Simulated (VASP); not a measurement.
# Bulk modulus and pressure derivative of WC (WC-type) at PBEsol from stress and from energy against Eulerian strain

Whoever models a hard-metal tool or an anvil under load must decide which bulk modulus and pressure derivative to enter for tungsten carbide, and whether the stress tensor gives them as reliably as a fit to energies. The modulus sets how much the carbide grains shrink under pressure, and the derivative sets how fast they stiffen. Both are derived here for the static lattice of WC (WC-type) at PBEsol, from seven uniformly scaled cells. Pressure is counted positive in compression, energy is taken per atom above the lowest computed row, and strain is measured from the fitted volume $V_0$ = 10.2818 Å³ per atom. The reference is the third-order Birch-Murnaghan fit to the energies, with $B_0$ = 424.8 GPa and $B_0'$ = 4.26. No measured value is compared here.

## Systems and settings

One crystal, WC (WC-type) (known phase), at PBEsol: single-point runs on uniformly scaled copies of a cell relaxed at PBEsol; symmetry leaves the cell shape free, held here. Program: VASP 6.6.1, plane waves and PAW (data sets made for PBE of release 64), scalar-relativistic without spin-orbit coupling, no spin polarisation. Cutoff 520 eV; on the k meshes the divisions times the cell-vector length are 22 Å or more. Occupations: Gaussian smearing of 0.05 eV. The coarsest mesh (22 Å) is coarse for metals and narrow gaps.

Notes on method and selection:

- Third-order Birch-Murnaghan: P = 3·B0·f·(1 + 2f)^(5/2)·[1 + (3/2)(B0′ − 4)·f]. The fit to the energies of these runs gives B0 = 424.8 GPa and B0′ = 4.26.
- Static lattice. The pressure from the stress tensor and the slope of the energy need not agree exactly at a finite cutoff and mesh.
- With the cell shape held the modulus is an upper bound.
- A measured value is attached only where its sources agree among themselves; tables made before the last selection also left out values far from the computed one, as likely another phase or mode.
- Series whose points a third-order Birch-Murnaghan form does not fit, or whose B0′ lies outside 2 to 8, were left out.
- Crystals whose pressure at the fitted V0 departs from zero by more than 0.6 % of B0 plus 0.1 GPa, and layered compounds, were left out.
- Runs that did not converge, have known faults or may not be shown are not listed, and runs on Ansatz's PAW sets soft_1 and soft_2 are kept to separate tables.

Columns:

- Eulerian strain: Eulerian strain f = ½[(V0/V)^(2/3) − 1] with the fitted V0 = 10.2818 Å³ per atom, compression positive.
- fitted bulk modulus (GPa): bulk modulus at that volume from the third-order Birch-Murnaghan fit to the energies.
- volume (Å³): volume per atom.
- pressure (GPa): pressure from the stress tensor, compression positive.
- energy (meV/atom): energy per atom above the lowest point, extrapolated to zero smearing.

Input lines of one member:

```
PREC = Accurate
ENCUT = 520
EDIFF = 1E-06
NELM = 100
ISMEAR = 0
SIGMA = 0.05
LREAL = .FALSE.
ALGO = Normal
GGA = PS
NBANDS = 11
LORBIT = 11
ISIF = 2
```

Command (options for logging and memory left out): `vasp_std`

## Results

| member | Eulerian strain | fitted bulk modulus (GPa) | volume (Å³) | pressure (GPa) | energy (meV/atom) |
| --- | --- | --- | --- | --- | --- |
| V = 10.895 Å³ | −0.01895 | 329.2 | 10.8953 | −21.83 | 43.82 |
| V = 10.690 Å³ | −0.01280 | 358.7 | 10.6897 | −15.30 | 20.01 |
| V = 10.484 Å³ | −0.00645 | 390.6 | 10.4842 | −8.03 | 5.07 |
| V = 10.279 Å³ | 0.00010 | 425.4 | 10.2786 | 0.05 | 0.00 |
| V = 10.073 Å³ | 0.00689 | 463.2 | 10.0730 | 9.01 | 5.82 |
| V = 9.867 Å³ | 0.01390 | 504.5 | 9.8674 | 19.00 | 23.75 |
| V = 9.662 Å³ | 0.02117 | 549.7 | 9.6619 | 30.14 | 55.25 |

pressure (GPa) against Eulerian strain:

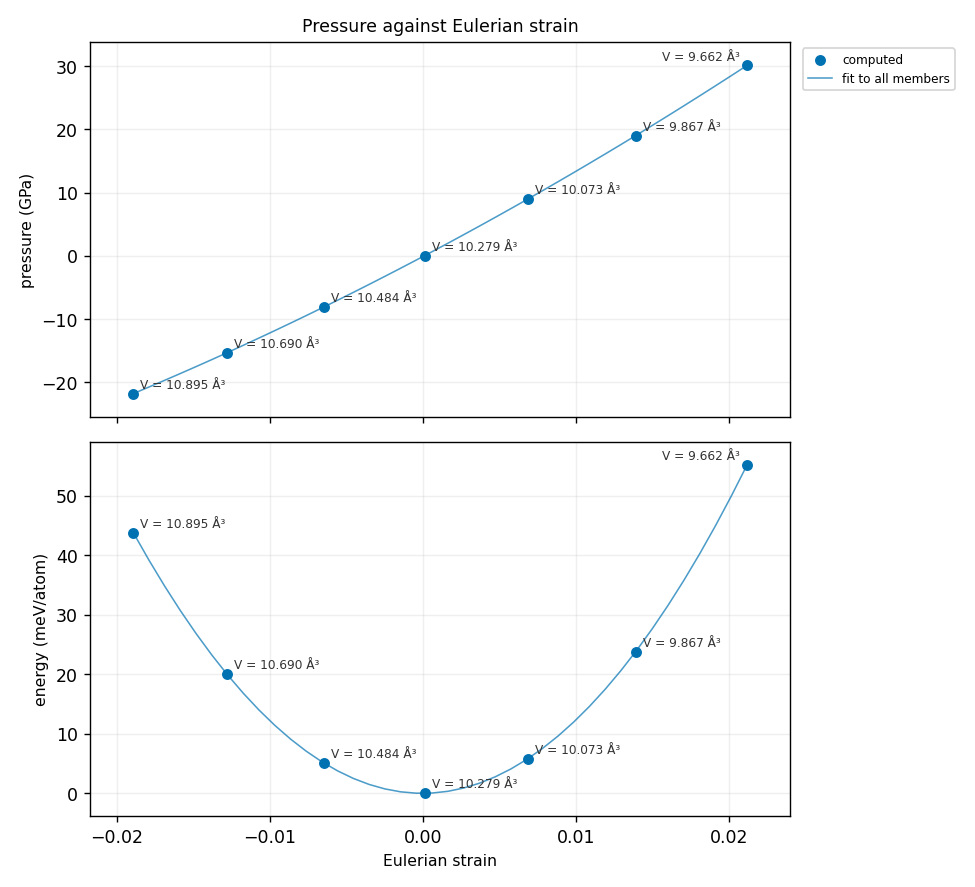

Least-squares fits to the whole series, with x = Eulerian strain; R² and errors in the fitted variable (y, or ln y where the fit is in ln y):

| y | members | fit | R² | rms residual | leave-one-out rms | the same for the mean of the others |
| --- | --- | --- | --- | --- | --- | --- |
| pressure (GPa) | 7 | y = −0.098619 + 1278.6 x + 7016.9 x² | 1.00 | 0.025 | 0.064 | 20 |
| energy (meV/atom) | 7 | y = −0.024701 + 9.5665 x + 122750 x² | 1.00 | 0.053 | 0.14 | 23 |

## The trend and its physics

Both routes lead to a bulk modulus of about 425 GPa and a pressure derivative of about 4.3.

For the pressure, $B = \tfrac{1}{3}(1+2f)\,dP/df$, so the linear coefficient of the quadratic fit gives 1278.6 / 3 = 426.2 GPa at $f = 0$. The ratio of the coefficients gives $B_0'$ = 2/3 + (2/3) × 7016.9 / 1278.6 = 4.33. The modulus is slightly high because the Birch-Murnaghan form also has a cubic term, of about 12000 GPa, which a quadratic partly absorbs into its slope. Over these strains that adds about 3.8 GPa to the slope, or 1.3 GPa to the modulus, and 426.2 − 1.3 = 424.9 GPa.

For the energy, $E = \tfrac{9}{2}B_0V_0f^2[1+(B_0'-4)f]$. The quadratic coefficient, 122750 / 1000 = 122.75 eV per atom, gives 2 × 122.75 / (9 × 10.2818) × 160.22 = 425.1 GPa, where 160.22 converts eV/Å³ to GPa.

The two pressures differ by a small offset. The Birch-Murnaghan pressure from the energy fit is 9.11 GPa at V = 10.073 Å³, against 9.01 GPa from the stress tensor. Over the seven rows the stress value is lower by 0.03 to 0.10 GPa. This is the sign expected of Pulay stress, which arises because the stress tensor is evaluated for a fixed set of plane waves, whereas the energies are compared at a fixed cutoff. A nearly constant offset shifts the zero of pressure and hardly touches the slope.

The fitted modulus rises from 329.2 GPa in the most expanded cell to 549.7 GPa in the most compressed one. As the W–C distance shrinks, the repulsion between overlapping electron shells steepens faster than the bonding attraction grows. The stiffening per unit pressure weakens on the way: it averages 96.2 / 21.88 = 4.40 on the expanded side and 124.3 / 30.09 = 4.13 on the compressed side.

## Departures from the trend

Largest departures from the fit to the whole series:

| member | pressure (GPa) | fit | computed − fit | in rms residuals |
| --- | --- | --- | --- | --- |
| V = 10.073 Å³ | 9.01 | 9.04 | −0.03 | 1.4 |
| V = 9.867 Å³ | 19.00 | 19.03 | −0.03 | 1.2 |
| V = 9.662 Å³ | 30.14 | 30.11 | +0.03 | 1.0 |
| V = 10.484 Å³ | −8.03 | −8.05 | +0.02 | 0.9 |

The largest departures from the quadratic pressure fit are only 0.03 GPa, but their signs form a pattern. The computed pressure lies below the fit at V = 10.073 and 9.867 Å³ and above it at 9.662 and 10.484 Å³. The omitted cubic term produces these signs, with a size of about 0.02 GPa, so the departures reflect the form of the fit and not a change in the crystal.

Measured against the energy-derived pressure, the most compressed cell stands slightly apart. At V = 9.662 Å³ the stress value is 30.14 GPa and the energy fit gives 3 × 424.8 × 0.02117 × (1 + 2 × 0.02117)^2.5 × (1 + 1.5 × (4.26 − 4) × 0.02117) = 30.17 GPa, a gap of 0.03 GPa where the other rows show roughly 0.06 to 0.10 GPa. A likely reason is that the slope of a fitted energy curve is least well fixed at the ends of its range. This variation also covers the difference between the two derivatives: changing $B_0'$ from 4.26 to 4.33 moves the pressure in that cell by only about 0.07 GPa.

## Using the table

**What pressure reduces the volume by 3 %?**
For $V/V_0$ = 1 − 0.03 = 0.97 the strain is $f$ = (0.97^(−2/3) − 1) / 2 = 0.01026. The Birch-Murnaghan form with the energy-fit constants gives 3 × 424.8 × 0.01026 × (1 + 2 × 0.01026)^2.5 × (1 + 1.5 × (4.26 − 4) × 0.01026) = 13.8 GPa. This lies between the rows at 9.01 and 19.00 GPa. A constant modulus would give 424.8 × 0.03 = 12.7 GPa, about 8 % too little.

**Can one or two stress calculations replace the energy series for the modulus?**
Two can, if they straddle $V_0$ and $V_0$ is known; the strains used here take it from the energy fit. The rows at V = 10.073 and 10.484 Å³ give (9.01 + 8.03) / (0.00689 + 0.00645) / 3 = 425.8 GPa, which is 1.0 GPa above the energy fit. The offset in pressure cancels in the difference. With the compressed row alone, and $B_0'$ = 4.26 assumed, the result is 9.01 / (3 × 0.00689 × (1 + 2 × 0.00689)^2.5 × (1 + 1.5 × (4.26 − 4) × 0.00689)) = 420.1 GPa, which is too low by 424.8 − 420.1 = 4.7 GPa, because the offset no longer cancels.

**Can the pressure derivative be read from the two end energies?**
Dividing energy by squared strain gives 43.82 / 0.01895² = 122030 meV and 55.25 / 0.02117² = 123280 meV. The slope between them is (123280 − 122030) / (0.02117 + 0.01895) = 31160 meV, and the value interpolated to zero strain is 122030 + 31160 × 0.01895 = 122620 meV. Hence $B_0'$ = 4 + 31160 / 122620 = 4.25, close to the full fit. Rounding of the printed strains alone can move this by about 0.03.

## Conclusions

Between 9.662 and 10.895 Å³ per atom, $B_0$ = 425 GPa and $B_0'$ = 4.3 describe the static PBEsol crystal by either route. The agreement within about 1 GPa tests the analysis, not the functional, cutoff or k mesh, which both routes share; the mesh is on the coarse side for a metal.

The axial ratio was held. Away from the relaxed volume the stress along $c$ exceeds that in the basal plane in magnitude, so under hydrostatic pressure $c$ would shorten relatively less than $a$. Allowing this would lower the modulus, though only in second order of the stress difference. The atomic positions are fixed by symmetry and add no further relaxation.

Zero-point motion and temperature are left out. Both normally expand the lattice and soften it, so a room-temperature modulus at this level should lie somewhat below the static one.

[Logs are printed without paths, hosts, clocks, repeated set-up lines and the standing remarks that a program may print on its own settings, such as how far it seeks lower states.]
